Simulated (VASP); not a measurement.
# CdTe under uniaxial [001] stress: direct gap, electron mass and side valleys at TB-mBJ with spin-orbit coupling

We have to decide whether to pull or to press a CdTe element along [001] so that its absorption edge moves to lower energy. The brief, in round numbers of our own choosing, asks for an edge at least 0.030 eV below that of the unstrained crystal, with a strain of no more than 2 %. The nearest side valley must stay at least 0.70 eV above the conduction minimum at Γ, and the electron mass along the axis must stay within 2 % of its unstrained value. Among the rows that pass, the smallest strain wins. The band edges are TB-mBJ values with spin-orbit coupling on LDA cells that are free of stress across the axis. Level energies count from the valence-band top at Γ, and shifts count from the 0 % row.

## Set-up

The start is a typed prototype cell. The crystal was relaxed with LDA. Strain is imposed along [001]; the strain across the axis is adjusted until the stress across it vanishes, and the atoms are relaxed with LDA. VASP 6.6.1, plane waves with PAW, cutoff 450 eV, no spin polarisation. Band edges are single points at TB-mBJ with spin-orbit coupling on these cells, k mesh 7×7×7, read on short lines of k points at the zone centre and through the valleys; energies are counted from the valence-band top at the zone centre. Masses are fitted within 0.05 1/Å of the zone centre. All levels use the PAW data sets made with LDA.

Notes on method and selection:

- A valley's energy from the valence-band top holds the shift of that top as well as the shift of the valley.
- The TB-mBJ parameter c is fixed anew from the density of each cell, so it changes along the series.
- Runs that did not converge, have known faults or may not be shown are not listed, and runs on Ansatz's PAW sets soft_1 and soft_2 are kept to separate tables.

Columns:

- strain (%): strain along the axis (tension positive).
- Γ level (eV): lowest conduction level at Γ.
- Δ valley (eV): lowest conduction level along Γ–X.
- L valley (eV): lowest conduction level at the L points.
- mass, axis (mₑ): electron mass at Γ along the axis.
- mass, across (mₑ): electron mass at Γ across the axis.

Input lines of one member:

```
PREC = Accurate
ENCUT = 450
EDIFF = 1E-06
NELM = 150
ISMEAR = 0
SIGMA = 0.02
LREAL = .FALSE.
ALGO = Normal
METAGGA = MBJ
LASPH = .TRUE.
LNONCOLLINEAR = .TRUE.
NBANDS = 28
GGA_COMPAT = .FALSE.
LSORBIT = .TRUE.
KPAR = 3
```

Command (options for logging and memory left out): `mpirun -np 3 vasp_ncl`

## The series

```
member  sign of the strain  strain (%)  Γ level (eV)  Δ valley (eV)  L valley (eV)  mass, axis (mₑ)  mass, across (mₑ)
−2 %    compression         −2.0        1.616         2.790          2.360          0.1397           0.1377
−1.5 %  compression         −1.5        1.623         2.829          2.370          0.1392           0.1382
−1 %    compression         −1.0        1.628         2.868          2.380          0.1388           0.1378
−0.5 %  compression         −0.5        1.634         2.907          2.388          0.1389           0.1384
0 %     compression         0.0         1.640         2.945          2.396          0.1388           0.1388
0 %     tension             0.0         1.640         2.945          2.396          0.1388           0.1388
+0.5 %  tension             0.5         1.629         2.925          2.387          0.1382           0.1386
+1 %    tension             1.0         1.618         2.905          2.377          0.1377           0.1384
+1.5 %  tension             1.5         1.606         2.885          2.366          0.1372           0.1389
+2 %    tension             2.0         1.594         2.864          2.355          0.1368           0.1387
```

Γ level (eV) against strain (%):

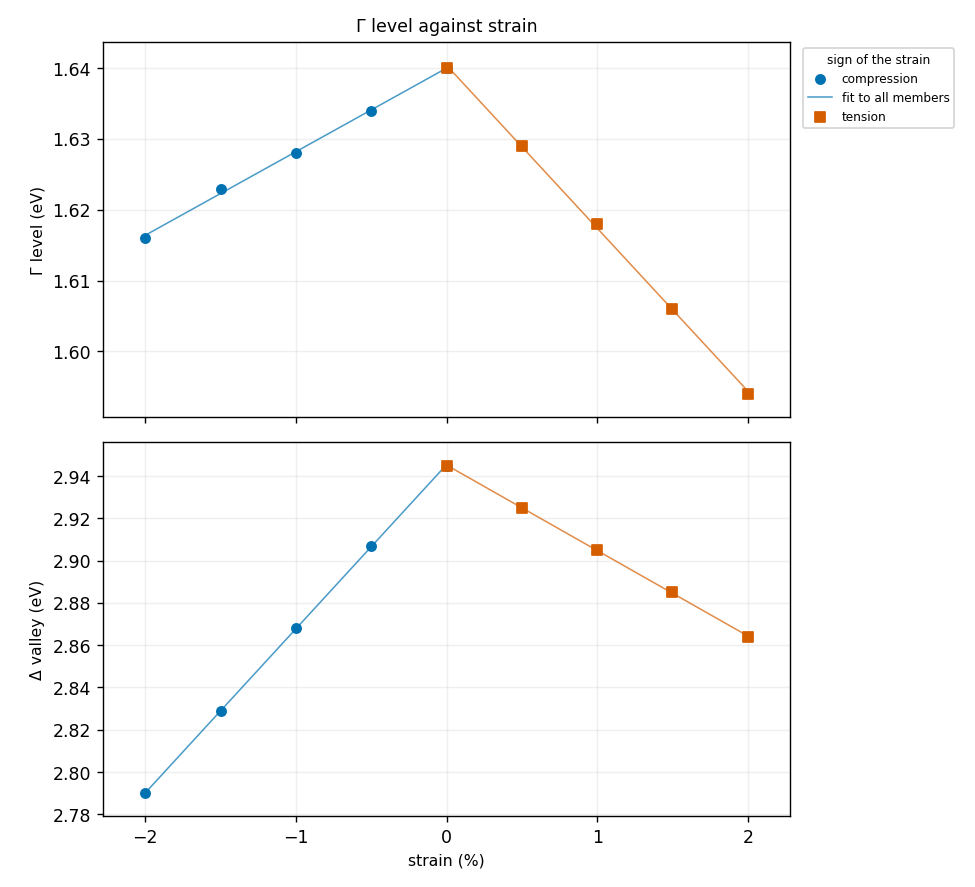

Least-squares fits to the whole series, with x = strain (%); R² and errors in the fitted variable (y, or ln y where the fit is in ln y):

```
y              sign of the strain  members  fit                      R²    rms residual  leave-one-out rms  the same for the mean of the others
Γ level (eV)   compression         5        y = 1.640 + 0.01180 x    1.00  3.7×10⁻⁴      6.5×10⁻⁴           0.010
Γ level (eV)   tension             5        y = 1.6404 − 0.023000 x  1.00  3.7×10⁻⁴      7.2×10⁻⁴           0.020
Δ valley (eV)  compression         5        y = 2.9454 + 0.077600 x  1.00  2.8×10⁻⁴      5.7×10⁻⁴           0.069
Δ valley (eV)  tension             5        y = 2.9452 − 0.040400 x  1.00  2.8×10⁻⁴      5.7×10⁻⁴           0.036
```

## Reading the trend

The gap at Γ falls for both signs of strain, by 0.0118 eV per % of compression and 0.0230 eV per % of tension. Two effects add up. The change of shape splits the heavy- and light-hole states at the valence-band top, and one of them rises whichever way the crystal is strained. The change of volume widens the gap under compression and narrows it under tension. If both are linear, the splitting takes (0.0230 + 0.0118) / 2 = 0.0174 eV per % off the gap, and the volume term is (0.0230 − 0.0118) / 2 = 0.0056 eV per %.

The L valleys support this reading. Stress along [001] leaves them equivalent, yet their energy falls by 2.396 − 2.360 = 0.036 eV at −2 % and by 2.396 − 2.355 = 0.041 eV at +2 %, a mean of (0.036 + 0.041) / 4 = 0.019 eV per %, close to the splitting term.

L is the nearest side valley in every row. It lies 2.396 − 1.640 = 0.756 eV above the Γ level without strain, 0.744 eV at −2 % and 0.761 eV at +2 %. The Δ valley starts 1.305 eV above Γ and comes down to 1.174 eV at −2 % but only to 1.270 eV at +2 %. Compression lowers the single valley on the stress axis, while tension lowers the two across it, and a change of shape moves the single valley twice as far as the pair.

The mass along the axis drops from 0.1397 to 0.1368 mₑ between −2 % and +2 %, about 2 %. The shifts of the hole levels alone would give the opposite sign, since compression brings the light-hole state, which lightens the axial mass, closer to the conduction band. A possible cause is that compression turns the bonds away from the axis and weakens the s–p coupling for motion along it.

## Members off the line

Largest departures from the fit to the whole series:

```
member  sign of the strain  Γ level (eV)  fit    computed − fit  in rms residuals
−1.5 %  compression         1.623         1.622  +0.001          1.9
+1 %    tension             1.618         1.617  +0.001          1.6
0 %     tension             1.640         1.640  0.000           1.1
+2 %    tension             1.594         1.594  0.000           1.1
```

The largest departures from the two gap lines are 0.001 eV, which is the printed rounding. The real break is at zero strain, where the slope changes sign, so a single line through both branches would be wrong.

At −2 % the valence-band top lies slightly off Γ, and the smallest gap is marginally indirect. The tabled direct gap remains usable for an absorption edge.

The mass across the axis moves up and down by up to 0.0006 mₑ from row to row, which we take as scatter of the fit. Its changes under tension are no larger than that. All the masses are probably too heavy, because TB-mBJ tends to overestimate electron masses in such semiconductors, often by some tens of per cent. We therefore use only their ratios.

## Selection

The shift of the edge decides the screening. Under compression the largest is 1.616 − 1.640 = −0.024 eV, at −2 %, so no compressed row meets the brief. Under tension, +0.5 % gives −0.011 eV and +1 % gives 1.618 − 1.640 = −0.022 eV, both too little. The rows at +1.5 % and +2 % pass with −0.034 and −0.046 eV.

Both also meet the other limits. The L valley lies 2.366 − 1.606 = 0.760 eV above Γ at +1.5 % and 0.761 eV at +2 %. With $k_BT$ = 0.0259 eV at 300 K, the first is 0.760 / 0.0259 = 29 thermal energies, so thermal transfer of electrons to L is negligible. The axial mass changes by 0.1372 / 0.1388 − 1 = −1.2 % and 0.1368 / 0.1388 − 1 = −1.4 %. At a fixed scattering time, where mobility goes as $1/m$, that is a gain of just over 1 %.

For the edge as a wavelength we use $\lambda = hc/E$ with $hc$ = 1240 eV nm. The unstrained crystal gives 1240 / 1.640 = 756 nm and the +1.5 % row 1240 / 1.606 = 772 nm, a shift of 16 nm. TB-mBJ gaps of such semiconductors are commonly off by roughly 0.2 eV, which moves the absolute edge by about 1240 × 0.2 / 1.640² = 92 nm. The same error changes the 16 nm shift only to between about 13 and 21 nm. The table therefore serves to choose a shift, not to place an edge.

The element should therefore be pulled: our pick is +1.5 %, with +2 % as runner-up. The light must be polarised across the axis, because under tension the valence-band top is the heavy-hole state, which at Γ does not absorb light polarised along the axis. The pick fails if the true shift is smaller than the computed one by more than 1 − 0.030 / 0.034 = 12 %; the runner-up tolerates 1 − 0.030 / 0.046 = 35 %. A measured shift per strain on a test piece would settle the choice. Strength could overturn both, since bulk CdTe yields or cracks well below such strains, and only thin or very small pieces are likely to bear them.

## Summary

Between −2 % and +2 %, either sign of [001] strain narrows the direct gap, tension about twice as strongly as compression (0.0230 / 0.0118 = 1.9). The conduction minimum stays at Γ, far below the side valleys, and the electron mass hardly changes.

Two effects outside the series exceed its whole spread in gap, 1.640 − 1.594 = 0.046 eV. Warming to room temperature lowers the gap by roughly 0.1 eV. The LDA cell is too small, by roughly 1 % in length, which raises the computed gap by something like 0.1 eV. Both act on all rows in nearly the same way, so they matter much less for the shifts than for the gap itself.

[Logs are printed without paths, hosts, clocks, repeated set-up lines and the standing remarks that a program may print on its own settings, such as how far it seeks lower states.]
